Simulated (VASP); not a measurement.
# Pressure and energy of FeSi (P2_13) within about 6 % of its equilibrium volume, r2SCAN + rVV10

A solid near equilibrium is usually treated as a linear spring: pressure proportional to the change in volume, energy proportional to its square. The series tests that rule on FeSi for a practical purpose, a pressure marker in a press, read by X-ray diffraction from the length of its cubic cell edge.

The brief, set here in round numbers, asks for a working point with a pressure of at least 5 GPa, an edge at least 1 % shorter than at equilibrium, so that the shift is easily read, and a stored elastic energy of at most 300 MJ/m³, to limit what is released if the press fails. Pressure and energy are calculated for seven volumes. Compression is measured from the fitted equilibrium volume of the same level, and energy from the lowest row.

## Set-up

A cell from the Materials Project database, relaxed at this level and then scaled evenly, fractional positions kept. VASP 6.6.1, plane waves with PAW, r2SCAN + rVV10, cutoff 400 eV, k mesh 5×5×5, collinear spin, no spin-orbit coupling, static lattice. A Birch-Murnaghan fit to the energies has its minimum at 10.85 Å³ per atom.

Notes on method and selection:

- The pressure is that of a finite plane-wave basis, so it need not vanish exactly at the minimum of the energy.
- Only series whose fit has its minimum inside the range and an error under 0.5 meV per atom are shown.
- Where rows or columns differ in functional or spin-orbit coupling, non-spherical gradient terms in the PAW spheres (LASPH) may be on in some and off in others.
- Runs that did not converge, have known faults or may not be shown are not listed, and runs on Ansatz's PAW sets soft_1 and soft_2 are kept to separate tables.

Columns:

- volume change (%): volume relative to the fitted equilibrium volume.
- pressure (GPa): pressure from the stress tensor (positive: compressed).
- energy (meV/atom): energy per atom above the lowest point of the series.

## The series

| member | volume change (%) | pressure (GPa) | energy (meV/atom) |
| --- | --- | --- | --- |
| 10.18 Å³ | −6.13 | 17.07 | 34.2 |
| 10.40 Å³ | −4.13 | 10.88 | 14.9 |
| 10.61 Å³ | −2.14 | 5.11 | 3.7 |
| 10.83 Å³ | −0.14 | −0.06 | 0.0 |
| 11.05 Å³ | 1.86 | −4.50 | 2.7 |
| 11.26 Å³ | 3.86 | −8.64 | 11.1 |
| 11.48 Å³ | 5.85 | −12.31 | 25.0 |

pressure (GPa) against volume change (%):

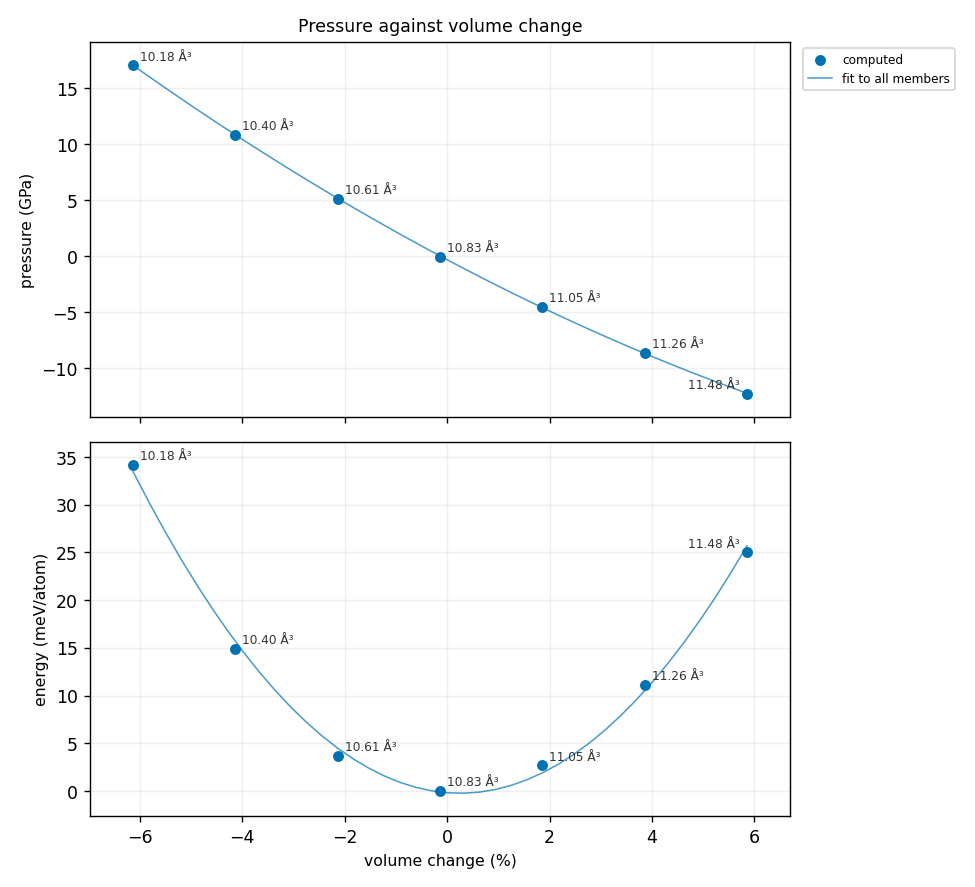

Least-squares fits to the whole series, with x = volume change (%); R² and errors in the fitted variable (y, or ln y where the fit is in ln y):

| y | members | fit | R² | rms residual | leave-one-out rms | the same for the mean of the others |
| --- | --- | --- | --- | --- | --- | --- |
| pressure (GPa) | 7 | y = −0.3175 − 2.428 x + 0.06634 x² | 1.00 | 0.067 | 0.13 | 11 |
| energy (meV/atom) | 7 | y = −0.1791 − 0.4182 x + 0.8268 x² | 1.00 | 0.67 | 1.8 | 14 |

## Interpretation

Pressure falls at every step of expansion, from 17.07 GPa at −6.13 % to −12.31 GPa at +5.85 %. The fitted slope at the equilibrium volume is −2.428 GPa per percent, which corresponds to a bulk modulus of 2.428 × 100 = 243 GPa.

The slope is far from constant. Between the two most compressed rows it is (10.88 − 17.07) / 2.00 = −3.10 GPa per percent, and between the two most expanded rows (−12.31 + 8.64) / 1.99 = −1.84 GPa per percent. The pressure slope is thus 1.7 times as steep at one end as at the other. A straight line with the fitted intercept and slope would give −0.3175 + 2.428 × 6.13 = 14.57 GPa at −6.13 %, which is too low by 17.07 − 14.57 = 2.50 GPa.

The energy shows the same asymmetry. Divided by the square of the volume change, it is 34.2 / 6.13² = 0.91 meV per atom per squared percent at the compressed end and 25.0 / 5.85² = 0.73 at the expanded end, where a harmonic spring would give one constant. A parabola fitted to the energies therefore has its minimum displaced to 0.4182 / (2 × 0.8268) = +0.25 %, an artefact of the missing cubic term.

The cause is the general shape of a binding curve. Pressure is the negative derivative of energy with respect to volume. On compression, the kinetic energy of the electrons and the repulsion between overlapping shells rise faster than the bonding energy gained; on expansion, the restoring attraction weakens. The parallel iron moments also grow as the cell expands, because narrower d bands favour spin polarisation. This can soften the lattice further, by an amount that the columns do not isolate.

## Departures from the trend

Largest departures from the fit to the whole series:

| member | pressure (GPa) | fit | computed − fit | in rms residuals |
| --- | --- | --- | --- | --- |
| 11.05 Å³ | −4.50 | −4.60 | +0.10 | 1.5 |
| 10.83 Å³ | −0.06 | 0.02 | −0.08 | 1.2 |
| 10.61 Å³ | 5.11 | 5.18 | −0.07 | 1.1 |
| 11.26 Å³ | −8.64 | −8.70 | +0.06 | 0.9 |

The row at 10.83 Å³ looks wrong in sign: it is compressed by 0.14 %, yet its pressure is −0.06 GPa. The slope alone would give 0.14 × 2.428 = +0.34 GPa. Most of the difference is the stress error of a finite plane-wave basis, which also appears as the fitted pressure of −0.3175 GPa at the energy minimum. Energy differences between neighbouring rows likewise imply pressures a few tenths of a GPa above those from the stress tensor, so the offset belongs to the whole series and can be corrected by adding 0.32 GPa.

The largest departure from the quadratic pressure fit is 0.10 GPa, at 11.05 Å³. That is small beside the steps of several GPa between rows and gives no reason to distrust any of them.

## Meeting the brief

Four rows fail on pressure at once. The three expanded cells are under tension, and the cell at 10.83 Å³ reaches only −0.06 + 0.32 = 0.26 GPa after the basis correction. Three compressed cells remain.

The change in edge length follows from (1 + x/100)^(1/3) − 1, with x the volume change in percent. The stored energy density is the energy per atom divided by the volume per atom, with 1 meV/Å³ = 160.2 MJ/m³.

- **10.61 Å³:** pressure 5.11 + 0.32 = 5.43 GPa; edge about −0.7 %; energy 3.7 / 10.61 × 160.2 = 56 MJ/m³. The edge shift is too small.
- **10.40 Å³:** pressure 10.88 + 0.32 = 11.20 GPa; edge −1.4 %; energy 14.9 / 10.40 × 160.2 = 230 MJ/m³. All three conditions are met.
- **10.18 Å³:** pressure 17.07 + 0.32 = 17.39 GPa; edge −2.1 %; energy 34.2 / 10.18 × 160.2 = 538 MJ/m³. The stored energy is too high.

The level probably makes FeSi too stiff, since measured bulk moduli are lower, by roughly a quarter. With an allowance of 30 % on pressure and energy, the cell at 10.40 Å³ still gives 0.7 × 11.20 = 7.8 GPa, while the one at 10.18 Å³ still stores 0.7 × 538 = 377 MJ/m³. The pick is therefore 10.40 Å³, understood as a compression of 4.13 %.

The runner-up is 10.61 Å³, which misses only the edge condition at face value. It would win if a shift of 0.7 % were readable and the calculated pressure held, because it stores about a quarter of the energy; with the 30 % allowance it would drop below 5 GPa.

The absolute volume should not be carried over to a real marker. The calculated equilibrium volume is roughly 4 % below the measured one, which at the slope found here amounts to roughly 10 GPa. A real sample measured at 10.40 Å³ per atom would be under a much higher pressure than the table gives.

## Conclusions and limits

Within about 6 % of equilibrium, the linear spring gives the right sign and scale, but the curvature is needed at the ends. The quadratic pressure fit predicts omitted rows to 0.13 GPa.

No omitted effect is expected to rival the 29 GPa spanned by the series, but some can exceed the basis error. Lattice vibrations would add a positive pressure of roughly 2 to 3 GPa at fixed volume and room temperature. The magnetic state is also at fault: real FeSi has no magnetic order and is a narrow-gap semiconductor when cold. Removing the moments should lower the pressure at fixed volume, by an amount not shown in the table. Finally, the fractional positions were kept fixed; letting the atoms relax in each scaled cell would lower the energies away from equilibrium and make the crystal somewhat softer.
